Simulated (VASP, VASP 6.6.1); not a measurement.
# Lattice constants of tetragonal MoSi₂: PBEsol within half a per cent on both axes

## Background

The reference is a pair of lattice constants for MoSi₂, obtained by powder X-ray diffraction on Czochralski-grown material and reported in "Giant magnetoresistance, Fermi surface topology, Shoenberg effect and vanishing quantum oscillations in type-II Dirac semimetal candidates MoSi₂ and WSi₂" (2022, arXiv:2202.05362). The conventional tetragonal cell has a = 3.20519 Å and c = 7.84461 Å. Diffraction gives these lengths almost directly, through the positions of the reflections, so little interpretation stands between the observation and the number. The temperature is not given with the values. The old structure determination from which I start, an entry of 1927, has a slightly shorter a and a slightly longer c; the two differ by about 0.2 % in each direction, and I compare with the newer values.

| compared with | measured | method |
| --- | --- | --- |
| lattice constant a of the conventional cell (Å) | 3.20519 | powder X-ray diffraction |
| lattice constant c of the conventional cell (Å) | 7.84461 | powder X-ray diffraction |

Conditions are those given with the value in the passage it was taken from; "not stated" means there, and the paper may say more elsewhere. The values are a selection: others may have been left out beforehand as unlike or outlying.

## Strategy

I want both axes of the I4/mmm cell, from a full relaxation of the three-atom cell. The target is 1 % on a and 1 % on c, each judged separately so that an error in the axial ratio cannot hide in the volume. This is a sensible demand for a stiff silicide: a good semilocal functional usually does better, while thermal expansion and zero-point motion, both absent from my static cells, should together amount to a few tenths of a per cent at most if the diffraction was done near room temperature.

I go straight to PBEsol, which was built for equilibrium geometries of dense solids. LDA would probably give axes that are too short and PBE axes that are somewhat too long, at much the same cost. MoSi₂ has no gap at this level, and I use narrow Gaussian smearing, so the sampling of the Fermi surface needs a check. After the first relaxation I will tighten mesh and cutoff separately, then set one neighbouring functional beside the result for scale.

System: Si2Mo; I4/mmm (No. 139), 3 atoms in the cell; conventional a = 3.200, c = 7.861 A, from an old structure determination (COD) that may be off by a few tenths of a percent; an entry of 1927.

## 1. PBEsol on a dense mesh

I start with PBEsol at 450 eV on a 12×12×12 mesh, a cautious choice for a crystal without a gap. The starting cell is stretched by 3 % in volume, so the relaxation has a real distance to cover. I expect both axes to end slightly below the measured ones, by a few tenths of a per cent.

**Run 1.** VASP 6.6.1: PBEsol; 450 eV, 12x12x12 k mesh; cell and atoms relaxed, relaxed twice, LASPH on.

Key lines of the input:
```
ALGO = Normal
EDIFF = 1E-06
EDIFFG = -0.006
ENCUT = 450
GGA = PS
IBRION = 2
ISIF = 3
ISMEAR = 0
LASPH = .TRUE.
NBANDS = 17
NELM = 100
NSW = 50
PREC = Accurate
SIGMA = 0.05
KPOINTS: Gamma, 12 12 12
PAW data sets: Mo_sv Si (PBE 64)
```

Command:
```
mpirun -np 8 vasp_std
```

Selected lines of the output:
```
[second pass]
   3 F= -.25078617E+02 E0= -.25078358E+02  d E =-.326922E-05
 reached required accuracy - stopping structural energy minimisation
  external PRESSURE =      -0.0163737 kB  Pullay stress =       0.0000000 kB
```

Converged; 82 s on 8 cores of AMD EPYC 7R43 64, shared host.

| quantity | run 1 | measured | deviation |
| --- | --- | --- | --- |
| lattice constant a of the conventional cell (Å) | 3.1914 | 3.20519 | −0.0138 (−0.4 %) |
| lattice constant c of the conventional cell (Å) | 7.8255 | 7.84461 | −0.0191 (−0.2 %) |
| volume of the conventional cell (Å³) | 79.70 |  |  |
| space group at the end | I4/mmm |  |  |
| pressure left at the end (GPa) | −0.0016 |  |  |

Both axes come out short, a by 0.4 % and c by 0.2 %, which is the direction and roughly the size I had expected for a static cell. Each is well inside the 1 % target. The relaxation reached its force criterion in the second pass, with almost no pressure left, but that says nothing about the sampling of the Fermi surface or the completeness of the basis.

## 2. Denser mesh and higher cutoff

I now change one setting at a time from the first run: the mesh to 16×16×16 at the same cutoff, and the cutoff to 600 eV on the same mesh. The mesh is the one I trust less, because narrow Gaussian smearing on a gapless crystal makes the occupations near the Fermi level sensitive to where the k points fall. I expect both axes to move by much less than their distance from experiment.

**Run 2.** VASP 6.6.1: PBEsol; 450 eV, 16x16x16 k mesh; cell and atoms relaxed, relaxed twice, LASPH on.

Key lines of the input, as changed from run 1:
```diff
- KPOINTS: Gamma, 12 12 12
+ KPOINTS: Gamma, 16 16 16
```

Selected lines of the output:
```
 reached required accuracy - stopping structural energy minimisation
  external PRESSURE =       0.0919516 kB  Pullay stress =       0.0000000 kB
```

Converged; wall time 2.4 min.

**Run 3.** VASP 6.6.1: PBEsol; 600 eV, 12x12x12 k mesh; cell and atoms relaxed, relaxed twice, LASPH on.

Key lines of the input, as changed from run 1:
```diff
- ENCUT = 450
+ ENCUT = 600
```

Selected lines of the output:
```
 reached required accuracy - stopping structural energy minimisation
  external PRESSURE =      -0.3263224 kB  Pullay stress =       0.0000000 kB
```

Converged; wall time 2 min.

| quantity | run 2 | run 3 | measured |
| --- | --- | --- | --- |
| lattice constant a of the conventional cell (Å) | 3.1919 | 3.1916 | 3.20519 |
| lattice constant c of the conventional cell (Å) | 7.8239 | 7.8264 | 7.84461 |
| volume of the conventional cell (Å³) | 79.71 | 79.72 |  |
| space group at the end | I4/mmm | I4/mmm |  |
| pressure left at the end (GPa) | 0.0092 | −0.0326 |  |

The denser mesh lengthens a by 0.0005 Å and shortens c by 0.0016 Å; the higher cutoff lengthens them by 0.0002 and 0.0009 Å. Shifts this small may owe something to where each relaxation stopped, so I do not assign them to mesh or basis. What matters is that they are far smaller than the gaps of 0.0138 and 0.0191 Å that the first run left to experiment. Neither setting, changed on its own, accounts for the short axes, and the PBEsol result stands within the target on both.

## 3. PBE for scale

I set PBE beside PBEsol at the settings of the first run, to see how much the choice of functional moves the axes compared with mesh and cutoff. PBE usually gives longer bonds in dense solids, so I expect both axes to grow and to end somewhat above the measured values.

**Run 4.** VASP 6.6.1: PBE; 450 eV, 12x12x12 k mesh; cell and atoms relaxed, relaxed twice, LASPH on.

Key lines of the input, as changed from run 1:
```diff
- GGA = PS
+ GGA = PE
```

Selected lines of the output:
```
 reached required accuracy - stopping structural energy minimisation
  external PRESSURE =       0.2122206 kB  Pullay stress =       0.0000000 kB
```

Converged; wall time 68 s.

| quantity | run 4 | measured | deviation |
| --- | --- | --- | --- |
| lattice constant a of the conventional cell (Å) | 3.2171 | 3.20519 | +0.0119 (+0.4 %) |
| lattice constant c of the conventional cell (Å) | 7.8742 | 7.84461 | +0.0296 (+0.4 %) |
| volume of the conventional cell (Å³) | 81.50 |  |  |
| space group at the end | I4/mmm |  |  |
| pressure left at the end (GPa) | 0.0212 |  |  |

PBE lengthens a by 0.0257 Å and c by 0.0487 Å relative to PBEsol at the same settings, and both axes now lie 0.4 % above experiment. The functional therefore moves the cell far more than the denser mesh or the higher cutoff did for PBEsol. PBE also meets the target on both axes, with errors of the opposite sign on each.

The axial ratio c/a is 2.4476 with PBE, against 2.4475 measured and 2.4521 with PBEsol. PBE thus enlarges the cell almost uniformly, while PBEsol shortens a a little more than c. That difference is too small to matter for the target. I stop here, since the PBEsol result has held under both checks and the neighbouring functional gives the scale I wanted.

## Results at a glance

| run | settings | lattice constant a of the conventional cell (Å) | deviation | lattice constant c of the conventional cell (Å) | deviation | cost |
| --- | --- | --- | --- | --- | --- | --- |
| 1 | PBEsol, 450 eV, 12x12x12 k mesh | 3.1914 | −0.0138 (−0.4 %) | 7.8255 | −0.0191 (−0.2 %) | 11 core-min |
| 2 | PBEsol, 450 eV, 16x16x16 k mesh | 3.1919 | −0.0132 (−0.4 %) | 7.8239 | −0.0207 (−0.3 %) | 19 core-min |
| 3 | PBEsol, 600 eV, 12x12x12 k mesh | 3.1916 | −0.0136 (−0.4 %) | 7.8264 | −0.0182 (−0.2 %) | 16 core-min |
| 4 | PBE, 450 eV, 12x12x12 k mesh | 3.2171 | +0.0119 (+0.4 %) | 7.8742 | +0.0296 (+0.4 %) | 9 core-min |
|  | measured | 3.20519 |  | 7.84461 |  |  |

The runs in order, against the measurement:

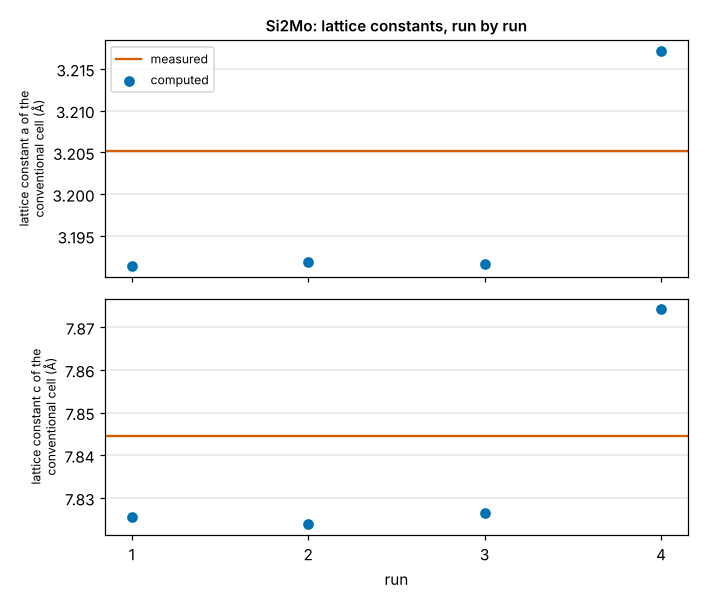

Further runs on the same system, made beside this series (convergence steps with loose settings among them):

| further | settings | lattice constant a of the conventional cell (Å) | deviation | lattice constant c of the conventional cell (Å) | deviation | cost |
| --- | --- | --- | --- | --- | --- | --- |
| F1 | r2SCAN, 450 eV, 12x12x12 k mesh | 3.2041 | −0.0011 (−0.0 %) | 7.8209 | −0.0237 (−0.3 %) | 39 core-min |
| F2 | r2SCAN + rVV10, 450 eV, 12x12x12 k mesh | 3.1991 | −0.0061 (−0.2 %) | 7.8149 | −0.0297 (−0.4 %) | 60 core-min |
| F3 | vdW-DF-cx, 450 eV, 12x12x12 k mesh | 3.2024 | −0.0028 (−0.1 %) | 7.850 | +0.005 (+0.1 %) | 27 core-min |
| F4 | PBEsol + D3(BJ), 450 eV, 12x12x12 k mesh | 3.1580 | −0.0472 (−1.5 %) | 7.7607 | −0.0839 (−1.1 %) | 13 core-min |
| F5 | PBEsol+U (Mo 4.38 eV), 450 eV, 12x12x12 k mesh | 3.2077 | +0.0025 (+0.1 %) | 7.8502 | +0.0056 (+0.1 %) | 9.7 core-min |
| F6 | LDA+U (Mo 4.38 eV), 450 eV, 12x12x12 k mesh | 3.1925 | −0.0127 (−0.4 %) | 7.8081 | −0.0365 (−0.5 %) | 8.6 core-min |
| F7 | BLYP, 450 eV, 12x12x12 k mesh | 3.2814 | +0.0762 (+2.4 %) | 7.9713 | +0.1267 (+1.6 %) | 15 core-min |
| F8 | LDA, 450 eV, 12x12x12 k mesh | 3.1768 | −0.0284 (−0.9 %) | 7.7853 | −0.0594 (−0.8 %) | 11 core-min |
| F9 | PBEsol, 250 eV, 12x12x12 k mesh | 3.1806 | −0.0246 (−0.8 %) | 7.8069 | −0.0377 (−0.5 %) | 6.2 core-min |
|  | measured | 3.20519 |  | 7.84461 |  |  |

## How well does the simulation do?

PBEsol meets the target on both axes: a is 0.4 % and c 0.2 % shorter than measured, at a cost of 11 core-minutes for the first relaxation. The denser mesh and the higher cutoff, each changed alone, left that result standing. At 250 eV the axes shrink by roughly a further 0.011 and 0.019 Å. Both still meet the target, but the error from the basis is then nearly as large as the distance to experiment that the first run left.

The sign of the remaining error is right for a static cell. Zero-point motion and, if the diffraction was done near room temperature, thermal expansion would lengthen both axes and could close a good part of the gap. The same allowance would take PBE, already 0.4 % too long on both axes, further from experiment, so its nearly exact axial ratio does not make it the better description.

The further runs put the choice in proportion. LDA also passes, but only narrowly: its axes are short by 0.9 and 0.8 %, in the direction I had expected. r2SCAN and vdW-DF-cx pass comfortably, and vdW-DF-cx comes within 0.1 % on both axes. Adding D3(BJ) to PBEsol shortens the cell enough to miss on both, which I read as extra attraction on a functional that already gives short axes. BLYP misses in the other direction. PBEsol+U lands within 0.1 %, but a large U on the broad 4d bands of a metallic silicide has little physical basis, and I take that closeness as fortuitous.

I cannot divide the PBEsol remainder between functional error and nuclear motion without a phonon calculation and the temperature of the measurement. The effect of the smearing width is not shown in this report.

[Logs are printed without paths, hosts, clocks, repeated set-up lines and the standing remarks that a program may print on its own settings, such as how far it seeks lower states.]

[The runs shown are a pick from a larger set of finished runs; failed, doubtful and other runs were left out of it ahead of writing. So were measured values far from every level or from commonly accepted values, and agreement can look better than it is. Lines of input and output are excerpts and may be shortened.]
